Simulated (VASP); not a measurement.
# Wall time of one SCF run on Pb (Fm-3m) with different electronic solvers and mixing settings, LDA plane-wave calculations

The self-consistent density of lead should not depend on the path by which it is reached, yet the runs compared here need between 10 and 25 cycles to arrive at practically the same energy. How much of that difference appears in the wall time is the question. It matters in surveys of metals and alloys, where a short calculation is repeated for very many small cells and the choice of solver is made once for all of them. The quantity studied is the wall time of one complete SCF run on the one-atom cell with 2 MPI ranks. The run with ALGO = Normal is the reference for both time and energy, and the other runs change either the solver or the density mixing.

## How the numbers were made

A cell from a diffraction database. VASP 6.6.1, plane waves with PAW, LDA, 1 atoms at fixed positions, no spin polarisation, no spin-orbit coupling. Held fixed: cutoff 400 eV, k mesh 9×9×9, ISMEAR = -1, SIGMA = 0.05 eV and 2 MPI ranks. Each row is named by the tags or value that set it apart; differences are taken from the run 'ALGO = Normal'. All ran on Intel(R) Xeon(R) 6975P-C (Granite Rapids), shared with other work, so times are rough.

Notes on method and selection:

- Runs that did not converge, have known faults or may not be shown are not listed, and runs on Ansatz's PAW sets soft_1 and soft_2 are kept to separate tables.

Columns:

- energy error (meV/atom): energy per atom extrapolated to zero smearing, less that of the reference (ALGO = Normal).
- cycles: SCF cycles.

## Data

```
member                   energy error (meV/atom)  cycles  wall time (s)
ALGO = VeryFast          0.000                    20      3.20
AMIX = 0.8               0.000                    10      1.80
ALGO = Damped            0.000                    19      2.40
IMIX = 1, AMIX = 0.2     −0.001                   25      3.20
ALGO = All               0.000                    14      2.20
ALGO = Fast              0.000                    13      ?
ALGO = Normal            0.000                    10      2.40
AMIX = 0.1, BMIX = 0.01  0.000                    10      1.80
```

Cells marked ? are withheld until the estimate has been made.

wall time (s) by member, members shown:

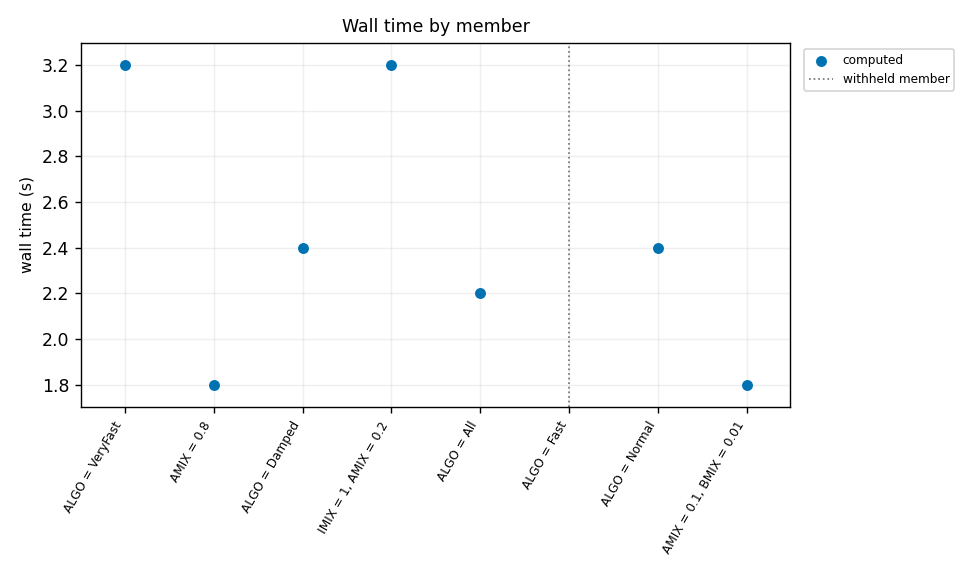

## Interpretation

The wall time tends to rise with the number of cycles, but by less than proportion. Between the runs with AMIX = 0.8 and with IMIX = 1, AMIX = 0.2, which share the same solver, the cycles grow by a factor 25 / 10 = 2.5 and the time by only 3.20 / 1.80 = 1.8. The added cost is (3.20 − 1.80) / (25 − 10) = 0.093 s per cycle, against an average of 1.80 / 10 = 0.18 s per cycle in the shorter run. A plausible reason is that set-up and output are paid once per run, and in a one-atom cell they weigh heavily beside the cycles.

The mixing acts through the number of cycles. Kerker mixing (IMIX = 1) keeps no memory of earlier steps and, in so small a cell, removes a roughly fixed fraction of the density error at each step, so a small AMIX makes it slow. The default mixer builds an approximate dielectric response from earlier steps and soon corrects a poor starting guess. This fits the 10 cycles found with AMIX = 0.8, with AMIX = 0.1, BMIX = 0.01 and with the reference settings. So small a cell also has no long-wavelength density components, which are the ones that slosh in large metallic cells.

Those three runs also show the timing noise: with equal solver and equal cycles they differ by 2.40 − 1.80 = 0.60 s, as can happen on a shared host. The times shown span only 3.20 − 1.80 = 1.40 s, so they support no firm ranking of the solvers by speed.

The energies agree within 0.001 meV/atom, but the computed pressure varies more noticeably and deviates most when AMIX and BMIX are both lowered. Near self-consistency the energy error is of second order in the density error, whereas the stress error is of first order. Equal energies therefore do not guarantee equally converged stresses. The PAW datasets were made for PBE although the functional is LDA; this is common to all runs and does not affect their comparison, but it is a further reason not to take the pressure as an accurate LDA value.

## Estimating the withheld member

Plain estimates from the members shown:

- ALGO = Fast, mean of the 7 members shown: 2.43 s, standard deviation 0.54

ALGO = Fast begins with the blocked Davidson scheme of ALGO = Normal and then changes to the residual minimisation used by ALGO = VeryFast. Its 13 cycles are known and lie inside the range of the other runs, so a straight line in the number of cycles N is a natural route. The seven shown runs have a mean of (20 + 10 + 19 + 25 + 14 + 10 + 10) / 7 = 15.4 cycles, and a least-squares fit to them gives

t = 2.43 + 0.084 × (N − 15.4), with t in s.

When each run is left out in turn and predicted from the other six, the root-mean-square miss is 0.36 s, against 0.63 s for the mean of the others. The line is thus preferred to the plain mean, although seven noisy times support it only moderately. For ALGO = All, the shown run nearest in cycles, the line fitted without it gives about 2.3 s against the tabulated 2.20 s. The largest miss, 0.59 s, is that of ALGO = Normal, and it is about as large as the spread among the three runs of equal solver and cycles.

For ALGO = Fast the line gives 2.43 + 0.084 × (13 − 15.4) = 2.23 s. No further shift is made for the cheaper residual-minimisation steps, because their saving in orthogonalisation should be small with the few bands of a one-atom cell. The leave-one-out miss of 0.36 s, rounded to 0.4 s, is taken as the standard deviation.

**Committed estimate, ALGO = Fast: wall time = 2.2 ± 0.4 s.**

## How the estimate fared

```
member       energy error (meV/atom)  cycles  wall time (s)
ALGO = Fast  0.000                    13      2.80
```

```
member       estimate   wall time (s)  computed  estimate − computed  miss in error bars
ALGO = Fast  committed  2.20           2.80      −0.60                1.5
ALGO = Fast  mean       2.43           2.80      −0.37
```

wall time (s) by member:

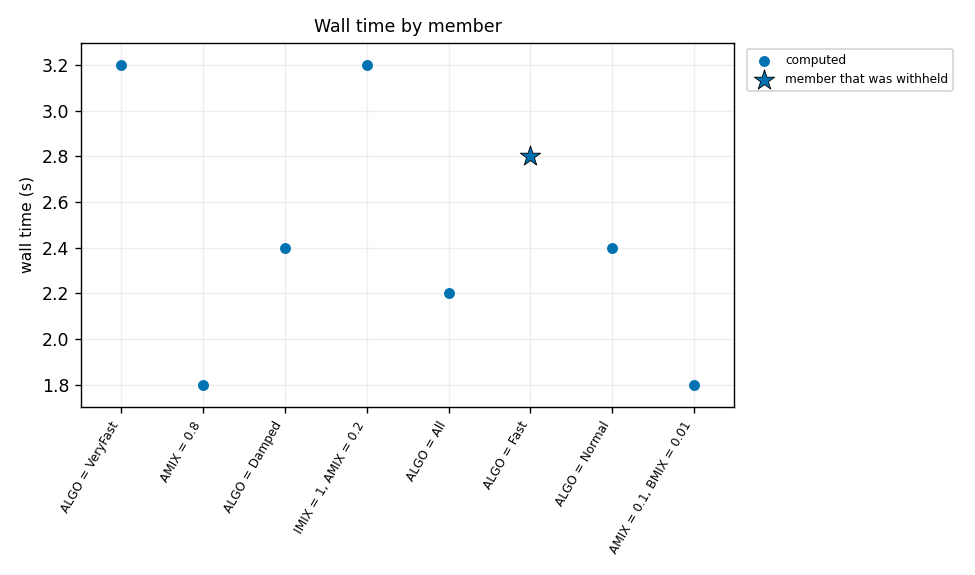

The estimate of 2.2 ± 0.4 s for ALGO = Fast was too low. The run took 2.80 s, so the miss is 0.60 s or 1.5 error bars, and the plain mean of the other seven runs came closer, with a miss of 0.37 s.

The weak point of the estimate was reading the time from the cycle count alone, which allows for neither the cost per cycle of each solver nor the load on the host. With 13 cycles this run took longer than ALGO = All with 14 cycles (2.20 s) and ALGO = Damped with 19 (2.40 s). Leaving out a reduction for cheaper residual-minimisation steps was right in direction, since such a shift would have enlarged the miss.

The result does not overturn the link between cycles and time, because 0.60 s is also the spread among the three runs with equal solver and equal cycles. It does show that the link is too loose to place a single run of this length reliably. Whether ALGO = Fast really costs more per cycle here, or was slowed by other work on the host, remains open.

## Where the trend breaks

With all eight runs included, the slope of the least-squares line falls slightly, from 0.084 to 0.078 s per cycle. ALGO = Fast lies farthest from the new line, about 0.5 s above it, followed by ALGO = Damped, about 0.4 s below it. Both departures are smaller than the 0.60 s spread between runs of equal solver and cycles, so load on the shared host would be enough to explain each. A cycle also does not contain the same work in every solver, which could add to either departure.

## Conclusions and limits

For this one-atom cell, runs with more cycles tend to take longer, over the range from 10 to 25 cycles. Predicting each of the eight runs from the other seven gives a typical miss of 0.40 s with the line and 0.59 s with the plain mean, a modest gain.

In absolute terms little time is at stake for such small cells. Over a thousand similar runs, the gap between the slowest and fastest settings would amount to 1000 × 1.40 = 1400 s, or about 0.4 h, and part of that gap may be timing noise. Since runs that did not converge are not listed, the table gives no measure of how reliable each setting is.

Spin-orbit coupling, important for the bands of lead, is left out here. It doubles both the number of bands and the components of each orbital and so raises the work per cycle, which means that these times do not carry over to runs that include it.

[Logs are printed without paths, hosts, clocks, repeated set-up lines and the standing remarks that a program may print on its own settings, such as how far it seeks lower states.]
